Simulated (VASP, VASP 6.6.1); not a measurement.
# Direct and indirect band gaps of bulk 2H-MoS2: semilocal functionals, TB-mBJ and Hubbard terms, with a hybrid comparison

## What was measured

Two optical studies of bulk crystals supply the reference values. The direct gap comes from "Photoacoustic and modulated reflectance studies of indirect and direct band gap in van der Waals crystals" (2017, PubMed Central 5684221). There the A transition at K was located by photoreflectance at room temperature on a commercial Bridgman-grown crystal. This is an exciton energy, so it lies below the quasiparticle gap at K.

The fundamental gap comes from "Temperature Dependence of the Indirect Gap and the Direct Optical Transitions at the High-Symmetry Point of the Brillouin Zone and Band Nesting in MoS2, MoSe2, MoTe2, WS2, and WSe2 Crystals" (2022, PubMed Central 8978178). It is the indirect absorption edge of a vapour-transport crystal, measured in transmission between 20 and 300 K and extrapolated to 0 K with a Varshni relation. Excitonic effects are not removed from it, and a phonon energy may be contained in the edge.

| compared with | measured | source's wording or label | T (K) | method |
| --- | --- | --- | --- | --- |
| smallest direct gap (eV) | 1.87 | direct gap at K (A transition) | room temperature | photoreflectance |
| fundamental gap (eV) | 1.299 ± 0.02 | indirect gap, phonon-emission absorption edge, extrapolated to 0 K with Varshni relation | 0 | optical absorption (transmission), 20-300 K |

Conditions are those given with the value in the passage it was taken from; "not stated" means there, and the paper may say more elsewhere. The values are a selection: others may have been left out beforehand as unlike or outlying.

## Approach

The aim is the cheapest level of theory that places both the smallest direct gap and the fundamental gap of bulk 2H-MoS$_2$ within 0.2 eV of experiment. The two measured values are 0.57 eV apart, so this target still separates the direct from the indirect gap. It also leaves room for what the calculations omit: exciton binding, zero-point motion and, for the direct gap, the shift up to room temperature. Each of these normally puts the optical value below the static quasiparticle gap, by several hundredths of an eV up to roughly 0.1 eV. A sound static calculation should therefore lie somewhat above the measured numbers, the direct one in particular.

The model is the six-atom hexagonal cell with the lattice constants of a published refinement and the atoms relaxed within it by LDA. Fixing the cell keeps the interlayer distance, to which the indirect gap is sensitive, out of the comparison of functionals. The work starts with LDA and a test of how the band edges are sampled. Cutoff and spin-orbit coupling follow, and then functionals of rising cost as far as the gaps require.

System: MoS2, space group P6_3/mmc (Molybdenite); P6_3/mmc (No. 194), 6 atoms in the cell; conventional a = 3.161, c = 12.295 A, from a published structure refinement (COD).

On the selection of runs and values: Electron-phonon renormalisation and excitons are left out; optical values lie below the quasiparticle gap by the exciton binding energy. 3 further cited values are not listed: repeats, values quoted from earlier work, more than five for one quantity or six quantities, optical onsets of an indirect gap, or quantities that fewer than three runs give.

## 1. LDA on the mesh and along lines

LDA is the natural floor in cost, and its gaps are expected to be too small. In this layered crystal the conduction minimum may lie at a general point between $\Gamma$ and K, where a regular mesh can miss it. The same LDA calculation is therefore evaluated once on the mesh alone and once with the symmetry lines added.

**Run 1.** VASP 6.6.1: LDA; 350 eV, 9x9x2 k mesh; measured cell with atoms relaxed by LDA; levels on the mesh alone, LASPH on.

Key lines of the input:
```
ALGO = Normal
EDIFF = 1E-06
ENCUT = 350
GGA = CA
ISMEAR = 0
LASPH = .TRUE.
NBANDS = 32
NELM = 100
PREC = Accurate
SIGMA = 0.03
KPOINTS: Gamma, 9 9 2
PAW data sets: Mo_sv S (LDA 64)
```

Command:
```
mpirun -np 8 vasp_std
```

Converged; 8.8 s on 8 cores of AMD EPYC 7R43 64, shared host.

**Run 2.** VASP 6.6.1: LDA; 350 eV, 9x9x2 k mesh; measured cell with atoms relaxed by LDA; levels on the mesh and along the symmetry lines, LASPH on.

Key lines of the input, as changed from run 1:
```diff
- NBANDS = 32
+ NBANDS = 42
+ KPOINTS_OPT: line mode along the symmetry lines
```

Selected lines of the output:
```
DAV:  12    -0.489183800822E+02    0.56182E-04   -0.11447E-04  2280   0.465E-02    0.661E-02
DAV:  13    -0.489183717934E+02    0.82888E-05   -0.69314E-05  2342   0.405E-02    0.186E-02
DAV:  14    -0.489183712531E+02    0.54025E-06   -0.54158E-06  2106   0.131E-02
   1 F= -.48918371E+02 E0= -.48918371E+02  d E =-.449035E-42
 E-fermi :   7.7886
 k-point     1 :       0.0000    0.0000    0.0000
  band No.  band energies     occupation
     24       6.2912      2.00000
     25       6.2922      2.00000
     26       7.5067      2.00000
     27       9.5650      0.00000
     28       9.5650      0.00000
     29       9.5880      0.00000
```

Converged; took 25 s.

| quantity | run 1 | run 2 | measured |
| --- | --- | --- | --- |
| smallest direct gap (eV) | 1.645 | 1.645 | 1.87 |
| fundamental gap (eV) | 0.905 | 0.831 | 1.299 ± 0.02 |
| kind of gap | indirect | indirect |  |
| k points of the band edges | – | top at (0.000, 0.000, 0.000), bottom at (0.190, 0.190, 0.000) |  |

The fundamental gap falls from 0.905 eV on the mesh to 0.831 eV once the lines are included. The conduction minimum lies at (0.190, 0.190, 0), between $\Gamma$ and K and between the points of the mesh. The direct gap is the same in both evaluations. The lines are therefore needed for the indirect gap, and all further levels are evaluated with them.

LDA gives the right kind of gap but misses both targets. The fundamental gap is 0.47 eV too small, far outside the limit. The direct gap is 0.225 eV too small, a narrow miss on a margin too thin to rank levels on. The two errors differ by about a factor of two, so a rigid upward shift of the conduction bands would not repair both equally well.

## 2. Cutoff and spin-orbit coupling in LDA

Before the functional is changed, two properties of the LDA calculation are examined separately against the run with lines: the plane-wave cutoff, raised to 500 eV, and spin-orbit coupling. The cutoff should matter little on the scale of the target. Spin-orbit coupling splits the valence band at K and should lower the direct gap there, while the valence top at $\Gamma$ should hardly move. It would then widen the direct-gap miss, but its size is needed to judge any later level calculated without it.

**Run 3.** VASP 6.6.1: LDA; 500 eV, 9x9x2 k mesh; measured cell with atoms relaxed by LDA; levels on the mesh and along the symmetry lines, LASPH on.

Key lines of the input, as changed from run 2:
```diff
- ENCUT = 350
+ ENCUT = 500
```

Selected lines of the output:
```
  band No.  band energies     occupation
     26       7.5051      2.00000
     27       9.5625      0.00000
```

Converged; took 38 s.

**Run 4.** VASP 6.6.1: LDA with spin-orbit coupling; 350 eV, 9x9x2 k mesh; measured cell with atoms relaxed by LDA; levels on the mesh and along the symmetry lines, LASPH on.

Key lines of the input, as changed from run 2:
```diff
+ GGA_COMPAT = .FALSE.
- NBANDS = 42
+ LMAXMIX = 4
+ LNONCOLLINEAR = .TRUE.
+ LSORBIT = .TRUE.
+ MAGMOM = 0 0 0 0 0 0 0 0 0 0 0 0 0 0 0 0 0 0
+ NBANDS = 64
```

Command:
```
mpirun -np 8 vasp_ncl
```

Converged; took 90 s.

| quantity | run 3 | run 4 | measured |
| --- | --- | --- | --- |
| smallest direct gap (eV) | 1.645 | 1.612 | 1.87 |
| fundamental gap (eV) | 0.831 | 0.826 | 1.299 ± 0.02 |
| kind of gap | indirect | indirect |  |
| k points of the band edges | top at (0.000, 0.000, 0.000), bottom at (0.190, 0.190, 0.000) | top at (0.000, 0.000, 0.000), bottom at (0.190, 0.190, 0.000) |  |

Raising the cutoff to 500 eV leaves both gaps unchanged to the printed precision, so 350 eV suffices for the LDA gaps.

With spin-orbit coupling the direct gap falls by 0.033 eV and the fundamental gap by 0.005 eV. The second run also has more bands and some altered technical settings, so the differences are not strictly those of the coupling alone, but their pattern is the one it should produce. The valence top at $\Gamma$ is little affected, whereas the states at K are split. The lowering at K is modest because the interaction between the layers already splits the valence band there, and the two splittings do not simply add. Both changes are small against the target, and both widen the LDA misses.

## 3. PBE and r2SCAN in the same cell

The remaining error of LDA calls for another functional. PBE costs about as much as LDA, and r2SCAN adds the kinetic-energy density at a moderate price. Both are run without spin-orbit coupling in the same cell, so that only the functional and its potentials differ. PBE is expected to stay close to LDA, since gradient corrections seldom open a gap much at fixed geometry. r2SCAN should open both gaps somewhat, though perhaps not by the nearly half an electronvolt missing from the indirect one.

**Run 5.** VASP 6.6.1: PBE; 350 eV, 9x9x2 k mesh; measured cell with atoms relaxed by LDA; levels on the mesh and along the symmetry lines, LASPH on.

Key lines of the input, as changed from run 2:
```diff
- GGA = CA
+ GGA = PE
- PAW data sets: Mo_sv S (LDA 64)
+ PAW data sets: Mo_sv S (PBE 64)
```

Selected lines of the output:
```
DAV:  13    -0.435714448709E+02   -0.25148E-04   -0.90810E-05  2184   0.378E-02    0.106E-02
DAV:  14    -0.435714462612E+02   -0.13903E-05   -0.48711E-06  2252   0.896E-03    0.884E-03
DAV:  15    -0.435714468616E+02   -0.60040E-06   -0.18478E-06  1880   0.625E-03
   1 F= -.43571447E+02 E0= -.43571447E+02  d E =-.484211E-43
 E-fermi :   7.9215
 k-point     1 :       0.0000    0.0000    0.0000
  band No.  band energies     occupation
     24       6.3985      2.00000
     25       6.4875      2.00000
     26       7.6359      2.00000
     27       9.7180      0.00000
     28       9.7180      0.00000
     29       9.7414      0.00000
```

Converged; took 27 s.

**Run 6.** VASP 6.6.1: r2SCAN; 350 eV, 9x9x2 k mesh; measured cell with atoms relaxed by LDA; levels on the mesh and along the symmetry lines, LASPH on.

Key lines of the input, as changed from run 5:
```diff
- GGA = PE
+ METAGGA = R2SCAN
```

Selected lines of the output:
```
  band No.  band energies     occupation
     26       7.5367      2.00000
     27       9.7546      0.00000
```

Converged; took 94 s.

| quantity | run 5 | run 6 | measured |
| --- | --- | --- | --- |
| smallest direct gap (eV) | 1.649 | 1.762 | 1.87 |
| fundamental gap (eV) | 0.916 | 1.018 | 1.299 ± 0.02 |
| kind of gap | indirect | indirect |  |
| k points of the band edges | top at (0.000, 0.000, 0.000), bottom at (0.190, 0.190, 0.000) | top at (0.000, 0.000, 0.000), bottom at (0.190, 0.190, 0.000) |  |

PBE leaves the direct gap almost where LDA has it but raises the fundamental gap by 0.085 eV, more than expected for a gradient correction at fixed geometry. Both gaps still miss, the direct one narrowly.

r2SCAN brings the direct gap to 1.762 eV, 0.11 eV below the A transition and within the target. The fundamental gap rises to 1.018 eV but remains 0.28 eV too small. The omitted effects do not excuse this: exciton binding and zero-point motion would normally put the static gap above the optical edge, not below it. A phonon energy contained in the edge would act the other way, but only by some hundredths of an eV. The indirect gap is thus the harder of the two targets, and it decides which level is sufficient.

## 4. TB-mBJ without and with spin-orbit coupling

The modified Becke-Johnson potential (TB-mBJ) is designed for band gaps and avoids the exact exchange of a hybrid functional. It is expected to open both gaps beyond r2SCAN. As it is a potential without a matching energy functional, it is used here only for the bands, at the geometry already fixed. The calculation is made without and with spin-orbit coupling, so that a result near the limit can be judged with the coupling included at the same level.

**Run 7.** VASP 6.6.1: TB-mBJ; 350 eV, 9x9x2 k mesh; measured cell with atoms relaxed by LDA; levels on the mesh and along the symmetry lines, LASPH on.

Key lines of the input, as changed from run 5:
```diff
- GGA = PE
+ METAGGA = MBJ
- NELM = 100
+ NELM = 150
```

Selected lines of the output:
```
DAV: 106     0.499361903336E+03   -0.32880E-06   -0.12287E-10  1008   0.649E-05
```

Converged; took 2.2 min.

**Run 8.** VASP 6.6.1: TB-mBJ with spin-orbit coupling; 350 eV, 9x9x2 k mesh; measured cell with atoms relaxed by LDA; levels on the mesh and along the symmetry lines, LASPH on.

Key lines of the input, as changed from run 4:
```diff
- GGA = CA
+ METAGGA = MBJ
- NELM = 100
+ NELM = 150
- PAW data sets: Mo_sv S (LDA 64)
+ PAW data sets: Mo_sv S (PBE 64)
```

Selected lines of the output:
```
DAV:  58     0.499163335592E+03    0.64215E-07   -0.18392E-10  1608   0.682E-05
```

Converged; took 5.2 min.

| quantity | run 7 | run 8 | measured |
| --- | --- | --- | --- |
| smallest direct gap (eV) | 1.664 | 1.618 | 1.87 |
| fundamental gap (eV) | 1.054 | 1.047 | 1.299 ± 0.02 |
| kind of gap | indirect | indirect |  |
| k points of the band edges | top at (0.000, 0.000, 0.000), bottom at (0.333, 0.333, 0.000) | top at (0.000, 0.000, 0.000), bottom at (0.333, 0.333, 0.000) |  |

TB-mBJ does not open both gaps beyond r2SCAN. The fundamental gap rises only to 1.054 eV, still 0.245 eV too small, and the direct gap drops back to 1.664 eV, just outside its limit. With spin-orbit coupling both gaps lie 0.252 eV below experiment, so this level meets neither target.

The conduction minimum has also moved, from the point between $\Gamma$ and K to K itself. The two conduction valleys therefore compete closely enough for the functional to decide their order, and a fundamental gap of similar size can belong to a different transition. Self-consistency was slow as well, taking 106 steps without the coupling and 58 with it.

## 5. A Hubbard term on molybdenum

A Hubbard term on the Mo d states adds little work to a semilocal calculation, so it is examined before exact exchange. It is applied to LDA with $U = 4.38$ eV and to r2SCAN with $U = 2.2$ eV. Little gain is expected: the states at both band edges have much Mo d character, and the d electrons here are in broad bands rather than localised shells. r2SCAN needs less than 0.1 eV more in the fundamental gap to reach the target, however, so even a modest opening would count.

**Run 9.** VASP 6.6.1: LDA+U (Mo 4.38 eV); 350 eV, 9x9x2 k mesh; measured cell with atoms relaxed by LDA; levels on the mesh and along the symmetry lines, LASPH on.

Key lines of the input, as changed from run 2:
```diff
+ LDAU = .TRUE.
+ LDAUJ = 0 0
+ LDAUL = 2 -1
+ LDAUTYPE = 2
+ LDAUU = 4.38 0
+ LMAXMIX = 4
```

Selected lines of the output:
```
  band No.  band energies     occupation
     26       7.5760      2.00000
     27       9.6898      0.00000
```

Converged; took 22 s.

**Run 10.** VASP 6.6.1: r2SCAN+U (Mo 2.2 eV); 350 eV, 9x9x2 k mesh; measured cell with atoms relaxed by LDA; levels on the mesh and along the symmetry lines, LASPH on.

Key lines of the input, as changed from run 6:
```diff
+ LDAU = .TRUE.
+ LDAUJ = 0 0
+ LDAUL = 2 -1
+ LDAUTYPE = 2
+ LDAUU = 2.2 0
+ LMAXMIX = 4
```

Selected lines of the output:
```
  band No.  band energies     occupation
     26       7.5688      2.00000
     27       9.8220      0.00000
```

Converged; took 90 s.

| quantity | run 9 | run 10 | measured |
| --- | --- | --- | --- |
| smallest direct gap (eV) | 1.548 | 1.709 | 1.87 |
| fundamental gap (eV) | 0.864 | 1.015 | 1.299 ± 0.02 |
| kind of gap | indirect | indirect |  |
| k points of the band edges | top at (0.000, 0.000, 0.000), bottom at (0.190, 0.190, 0.000) | top at (0.000, 0.000, 0.000), bottom at (0.333, 0.333, 0.000) |  |

The Hubbard term does not supply the missing gap. In LDA it raises the fundamental gap by only 0.033 eV and lowers the direct gap by 0.097 eV, so both targets are missed clearly. In r2SCAN the fundamental gap stays practically where it was, at 1.015 eV, and the direct gap falls by 0.053 eV. The latter remains within its target, but the indirect gap is still 0.28 eV too small.

The term does not act as a uniform opening between occupied and empty states. At $\Gamma$ the separation of the band edges grows slightly with both functionals, while the smallest direct gap of the crystal shrinks. In r2SCAN the conduction minimum also moves to K, as it did with TB-mBJ. A plausible reason is that the states on both sides of the gap share Mo d character, so that the term shifts them together and changes mainly their relative positions. At the values of $U$ used here, it is no remedy for the indirect gap.

## All runs against the measurement

| run | settings | smallest direct gap (eV) | deviation | fundamental gap (eV) | deviation | cost |
| --- | --- | --- | --- | --- | --- | --- |
| 1 | LDA, 350 eV, levels on the mesh alone | 1.645 | −0.225 | 0.905 | −0.394 | 70 core-s |
| 2 | LDA, 350 eV, levels on the mesh and along the symmetry lines | 1.645 | −0.225 | 0.831 | −0.468 | 3.3 core-min |
| 3 | LDA, 500 eV, levels on the mesh and along the symmetry lines | 1.645 | −0.225 | 0.831 | −0.468 | 5.1 core-min |
| 4 | LDA with spin-orbit coupling, 350 eV, levels on the mesh and along the symmetry lines | 1.612 | −0.258 | 0.826 | −0.473 | 12 core-min |
| 5 | PBE, 350 eV, levels on the mesh and along the symmetry lines | 1.649 | −0.222 | 0.916 | −0.383 | 3.6 core-min |
| 6 | r2SCAN, 350 eV, levels on the mesh and along the symmetry lines | 1.762 | −0.108 | 1.018 | −0.281 | 13 core-min |
| 7 | TB-mBJ, 350 eV, levels on the mesh and along the symmetry lines | 1.664 | −0.206 | 1.054 | −0.245 | 18 core-min |
| 8 | TB-mBJ with spin-orbit coupling, 350 eV, levels on the mesh and along the symmetry lines | 1.618 | −0.252 | 1.047 | −0.252 | 42 core-min |
| 9 | LDA+U (Mo 4.38 eV), 350 eV, levels on the mesh and along the symmetry lines | 1.548 | −0.322 | 0.864 | −0.435 | 2.9 core-min |
| 10 | r2SCAN+U (Mo 2.2 eV), 350 eV, levels on the mesh and along the symmetry lines | 1.709 | −0.161 | 1.015 | −0.284 | 12 core-min |
|  | measured | 1.87 |  | 1.299 ± 0.02 |  |  |

The runs in order, against the measurement:

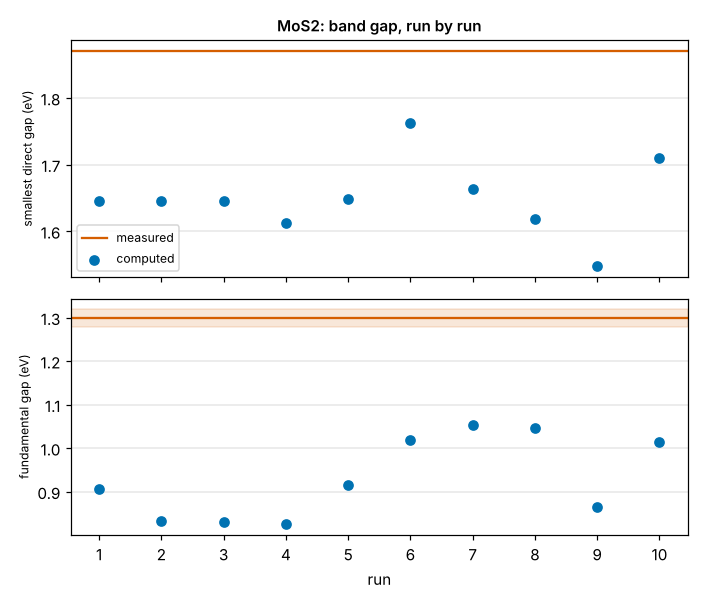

Further runs on the same system, made beside this series (convergence steps with loose settings among them):

| further | settings | smallest direct gap (eV) | deviation | fundamental gap (eV) | deviation | cost |
| --- | --- | --- | --- | --- | --- | --- |
| F1 | worked out from finished runs, with no new run: HSE06, 350 eV, 5x5x2 k mesh, measured cell with atoms relaxed by LDA, the spin-orbit change of the LDA gaps added | 2.075 | +0.205 | 1.430 | +0.131 | – |
| F2 | HSE06, 350 eV, 5x5x2 k mesh, measured cell with atoms relaxed by LDA, levels on the mesh and along the symmetry lines | 2.109 | +0.239 | 1.436 | +0.137 | 4.5 core-h |
| F3 | r2SCAN with spin-orbit coupling, 350 eV, 9x9x2 k mesh, measured cell with atoms relaxed by LDA, levels on the mesh and along the symmetry lines | 1.726 | −0.144 | 1.012 | −0.287 | 56 core-min |
| F4 | LDA, 350 eV, 9x9x2 k mesh, LDA-relaxed cell, levels on the mesh and along the symmetry lines, relaxed twice | 1.766 | −0.104 | 0.721 | −0.578 | 18 core-min |
| F5 | LDA, 350 eV, 12x12x4 k mesh, measured cell with atoms relaxed by LDA, levels on the mesh and along the symmetry lines | 1.645 | −0.225 | 0.829 | −0.470 | 4.5 core-min |
|  | measured | 1.87 |  | 1.299 ± 0.02 |  |  |

## Conclusion

No level in the main series meets both targets. r2SCAN, at 13 core-minutes, comes closest overall: its direct gap is 0.11 eV too small and passes, but its fundamental gap is 0.28 eV too small and fails. Even the pass is flattering, because the reference is a room-temperature exciton energy and the static quasiparticle gap should lie above it. Spin-orbit coupling lowers the r2SCAN direct gap by a further 0.036 eV.

The symmetry lines mattered, since the mesh alone overestimated the LDA indirect gap by 0.074 eV. A higher cutoff and a denser mesh changed the LDA gaps by at most 0.002 eV. TB-mBJ and the Hubbard terms did not solve the problem, and the steps spent on them would have been better given to a hybrid functional.

The supplementary HSE06 calculation supports this. At 4.5 core-hours it places the fundamental gap 0.14 eV above experiment, within the target. With the spin-orbit change from LDA added, the direct gap is 0.205 eV too large, a narrow miss on a margin too thin for ranking. Exciton binding and thermal and zero-point shifts, together perhaps 0.1 to 0.2 eV, would reduce this excess. Exact exchange thus appears to supply the opening that the semilocal functionals lack, although the convergence of the HSE06 gaps with the mesh is not shown in this report.

Geometry remains a sensitive point. In the LDA-relaxed cell the LDA direct gap rises into the target range while the indirect gap falls further from experiment, so that the direct agreement there is a cancellation of errors.

[Logs are printed without paths, hosts, clocks, repeated set-up lines and the standing remarks that a program may print on its own settings, such as how far it seeks lower states.]

[The runs shown are a pick from a larger set of finished runs; failed, doubtful and other runs were left out of it ahead of writing. So were measured values far from every level or from commonly accepted values, and agreement can look better than it is. Lines of input and output are excerpts and may be shortened.]
